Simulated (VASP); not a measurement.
# Plane-wave cutoff convergence of energy, pressure and forces in rock-salt CoO with LDA and PAW

The total energy, pressure and forces of ferromagnetic CoO in the rock-salt structure are calculated at fixed geometry for a series of plane-wave cutoffs, and each result is measured against the run at 800 eV. CoO is of interest as an electrode and catalyst material and as a magnetic layer in exchange-biased devices. Calculations of its lattice constant, elastic response or surfaces need a pressure as well as an energy that no longer depends on the basis. The question is which cutoff suffices for each quantity, and what it costs in computing time.

## Calculations

A cell from a diffraction database. VASP 6.6.1, plane waves with PAW, LDA, 2 atoms at fixed positions, collinear spin, no spin-orbit coupling. Held fixed: k mesh 9×9×9, ISMEAR = -1, SIGMA = 0.05 eV and 2 MPI ranks. Each row is named by the tags or value that set it apart; differences are taken from the run 'ENCUT = 800'. All ran on Intel(R) Xeon(R) Platinum 8559C (Emerald Rapids), shared with other work, so times are rough. The same in all rows: largest difference of a force component from the reference: 0.0 meV/Å; SCF cycles: 15.

Notes on method and selection:

- Runs that did not converge, have known faults or may not be shown are not listed, and runs on Ansatz's PAW sets soft_1 and soft_2 are kept to separate tables.

Columns:

- cutoff (eV): plane-wave cutoff ENCUT.
- energy error (meV/atom): energy per atom extrapolated to zero smearing, less that of the reference (ENCUT = 800).
- pressure error (GPa): pressure less that of the reference.
- time (s): wall time.

Input lines of one member:

```
PREC = Accurate
ENCUT = 240
EDIFF = 1E-06
NELM = 100
ISMEAR = -1
SIGMA = 0.05
LREAL = .FALSE.
ALGO = Normal
GGA = CA
NBANDS = 16
ISPIN = 2
LASPH = .TRUE.
LMAXMIX = 4
LORBIT = 11
KPAR = 2
```

Command (options for logging and memory left out): `mpirun -np 2 vasp_std`

## Data

| member | cutoff (eV) | energy error (meV/atom) | pressure error (GPa) | time (s) |
| --- | --- | --- | --- | --- |
| ENCUT = 240 | 240 | −73.18 | −110.66 | 3.2 |
| ENCUT = 300 | 300 | −28.31 | −41.15 | 5.2 |
| ENCUT = 360 | 360 | ? | ? | 6 |
| ENCUT = 400 | 400 | 0.45 | −6.35 | 5.8 |
| ENCUT = 460 | 460 | 0.97 | −1.11 | 7.8 |
| ENCUT = 520 | 520 | 1.27 | −0.05 | 7 |
| ENCUT = 640 | 640 | 0.51 | −0.22 | 16 |
| ENCUT = 800 | 800 | 0.00 | 0.00 | 15 |

Cells marked ? are withheld until the estimate has been made.

## Mechanism

The energy error shrinks quickly up to 400 eV and then stays small. Its slope is (−28.31 + 73.18) / 60 = 0.75 meV/atom per eV between 240 and 300 eV, and (0.45 + 28.31) / 100 = 0.29 between 300 and 400 eV. From 400 to 640 eV the error is positive and at most 1.27 meV/atom.

The sign at low cutoff is unusual, since a larger basis should lower a variational energy. A likely cause is the correction that VASP adds for the cutoff error of the free atoms: where it overshoots, the total energy comes out too low.

The pressure converges later. At 400 eV, where the energy is within 0.5 meV/atom of the reference, the pressure is still 6.35 GPa too low. This is the Pulay stress. The stress is evaluated with a fixed set of plane waves, whose effective cutoff rises when the cell is compressed. The basis error then falls, compression appears too cheap, and the pressure is underestimated. A constant correction per atom does not depend on volume and so cannot repair this. The pressure error falls to −1.11 GPa at 460 eV and −0.05 GPa at 520 eV. As it is −0.22 GPa at 640 eV, the very small value at 520 eV is partly fortuitous, and a few tenths of a GPa is the safer measure of what remains.

The forces vanish by symmetry at every cutoff, so their zero error is no evidence of convergence; a displaced atom would be required to test them.

All runs take 15 SCF cycles, and the time rises from about 3 s at 240 eV to 15 s at 800 eV. For energies at fixed volume 400 eV is adequate, while pressures call for 520 eV, at roughly half the time of the reference. These choices apply to the metallic ferromagnetic state obtained here, not to the antiferromagnetic insulator found in experiment.

## An estimate before looking

Plain estimates from the members shown:

- ENCUT = 360, straight-line interpolation between ENCUT = 300 and ENCUT = 400: w = (360 − 300) / (400 − 300) = 0.600, so −28.31 + 0.600 × (0.45 − (−28.31)) = −11.05 meV/atom

The straight line between 300 and 400 eV gives −11.05 meV/atom at 360 eV, but it ignores the steady flattening of the curve. Where the slope falls with cutoff, the curve lies above its chord, so the error should be smaller in size than this.

The curvature is taken from the four nearest shown members, at 240, 300, 400 and 460 eV, by passing a cubic through them. The weight of each member is the product of (360 − x) / (own cutoff − x) over the other three cutoffs x, which gives

(−5 / 44) × (−73.18) + (1 / 2) × (−28.31) + (3 / 4) × 0.45 − (3 / 22) × 0.97 = −5.6 meV/atom.

The same construction can be tried on two shown members. The cubic through 240, 300, 460 and 520 eV gives −0.6 at 400 eV, against 0.45 in the table, a miss of 1.1. The cubic through 240, 400, 460 and 520 eV gives (5 / 14) × (−73.18) + (11 / 6) × 0.45 − (5 / 3) × 0.97 + (10 / 21) × 1.27 = −26.3 at 300 eV, against −28.31, a miss of 2.0. Their root mean square, √((1.1² + 2.0²) / 2) = 1.6 meV/atom, is taken as the standard deviation.

No further shift is applied, because composition, structure and k mesh are the same in every row.

**Committed estimate, ENCUT = 360: energy error = −5.6 ± 1.6 meV/atom.**

## The answer

| member | cutoff (eV) | energy error (meV/atom) | pressure error (GPa) | time (s) |
| --- | --- | --- | --- | --- |
| ENCUT = 360 | 360 | −1.88 | −14.36 | 6 |

| member | estimate | energy error (meV/atom) | computed | estimate − computed | miss in error bars |
| --- | --- | --- | --- | --- | --- |
| ENCUT = 360 | committed | −5.60 | −1.88 | −3.72 | 2.3 |
| ENCUT = 360 | interpolation | −11.05 | −1.88 | −9.17 |  |

energy error (meV/atom) against cutoff (eV):

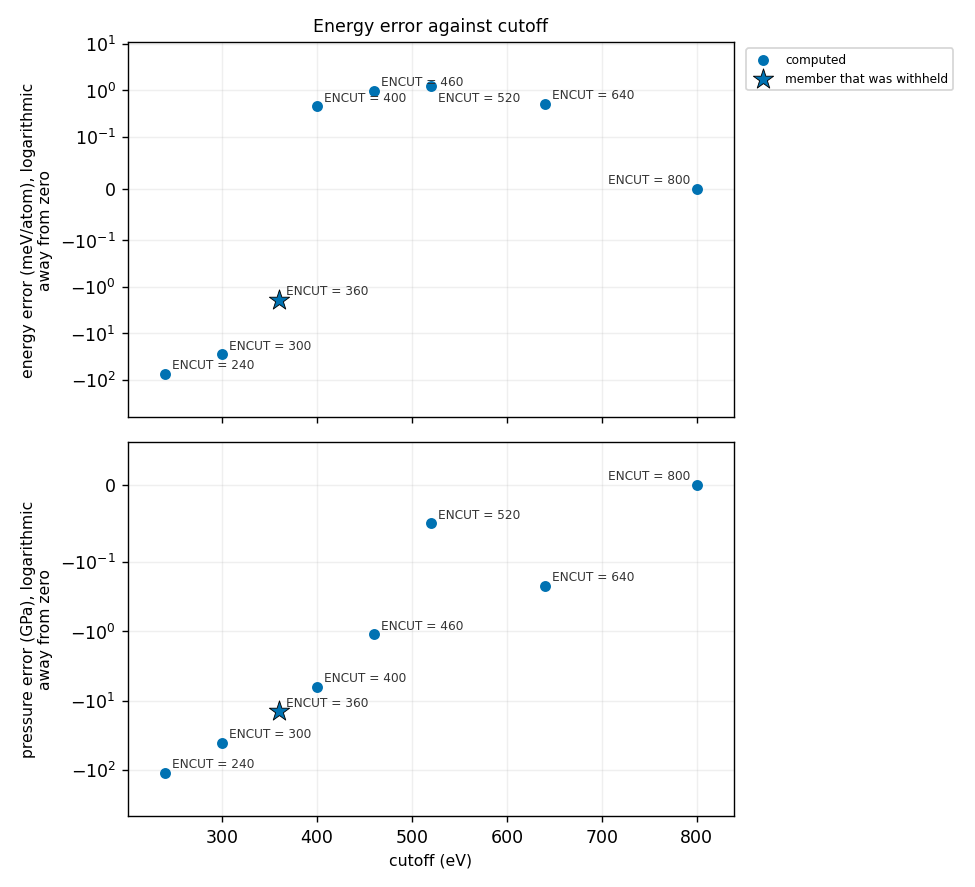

The estimate of −5.6 ± 1.6 meV/atom missed the computed −1.88 by 3.72 meV/atom, or 2.3 error bars. It was still better than the straight line, which missed by 9.17.

The argument that the curve lies above its chord held, but the cubic was too smooth. The slope is (−1.88 + 28.31) / 60 = 0.44 meV/atom per eV from 300 to 360 eV and only (0.45 + 1.88) / 40 = 0.06 from 360 to 400 eV. Neither test of the cubic was made at this bend, so the error bar was too narrow.

The signs in the completed table are in line with an overshooting atomic correction. A negative pressure error from the Pulay stress implies that the uncorrected energy still falls as the cutoff rises, whereas the tabulated energy rises up to 520 eV. An added term that more than cancels the basis error accounts for both signs. The small energy error at 360 eV, beside a pressure error of −14.36 GPa, is therefore largely a cancellation and not a sign of a complete basis. The same caution applies at 400 eV, where the pressure error is still −6.35 GPa.

## Departures from the trend

The runs at 240 and 300 eV lie farthest from the reference, with energies too low by 73.18 and 28.31 meV/atom and pressures too low by 110.66 and 41.15 GPa. The likeliest reason is the oxygen dataset, whose standard version is made for a cutoff of roughly 400 eV. Below that, the compact oxygen 2p functions are poorly described, and the cobalt 3d functions add to the error at the lowest cutoff. This alone would raise the energy; that it comes out too low fits an atomic correction that overshoots most where the basis is poorest.

These two runs nevertheless belong to a regular decay of the pressure error, which shrinks by a factor of 110.66 / 41.15 = 2.7 from 240 to 300 eV and of 41.15 / 14.36 = 2.9 from 300 to 360 eV. The energy error behaves differently: its factors over the same steps are 2.6 and 15, as expected where two contributions of opposite sign nearly cancel.

## Computational cost

The reference at 800 eV takes 15 / 3.2 = 4.7 times as long as the run at 240 eV, and 15 / 7 = 2.1 times as long as the run at 520 eV. Between 400 and 520 eV the times of 5.8 to 7.8 s differ by no more than can be expected on a shared machine. For a cell this small there is thus little to save by stopping at 400 eV, while the step to 520 eV reduces the pressure error from −6.35 to −0.05 GPa.

## Closing remarks

The rows from 400 eV upward agree with the reference energy within 1.3 meV/atom, and those from 520 eV upward with its pressure within 0.3 GPa. Below 400 eV, interpolation of the energy can miss by several meV/atom.

The pressure error translates into a lattice error through Δa/a ≈ Δp / (3B). For a stiff oxide with a bulk modulus B of roughly 200 GPa, the error at 400 eV gives −6.35 / (3 × 200) = −0.011, so a cell relaxed with this stress would come out about 1% too short.

The PAW datasets were generated with PBE, while the runs use LDA. This inconsistency is the same in every row, so a higher cutoff does not remove it.

Two omitted effects matter more for CoO itself than the errors left at 520 eV. A Hubbard U on the cobalt 3d states can open a gap in place of the metallic state, provided the degeneracy of the partly filled minority-spin t2g states is lifted, and the antiferromagnetic order found in experiment changes the energy as well.

[Logs are printed without paths, hosts, clocks, repeated set-up lines and the standing remarks that a program may print on its own settings, such as how far it seeks lower states.]
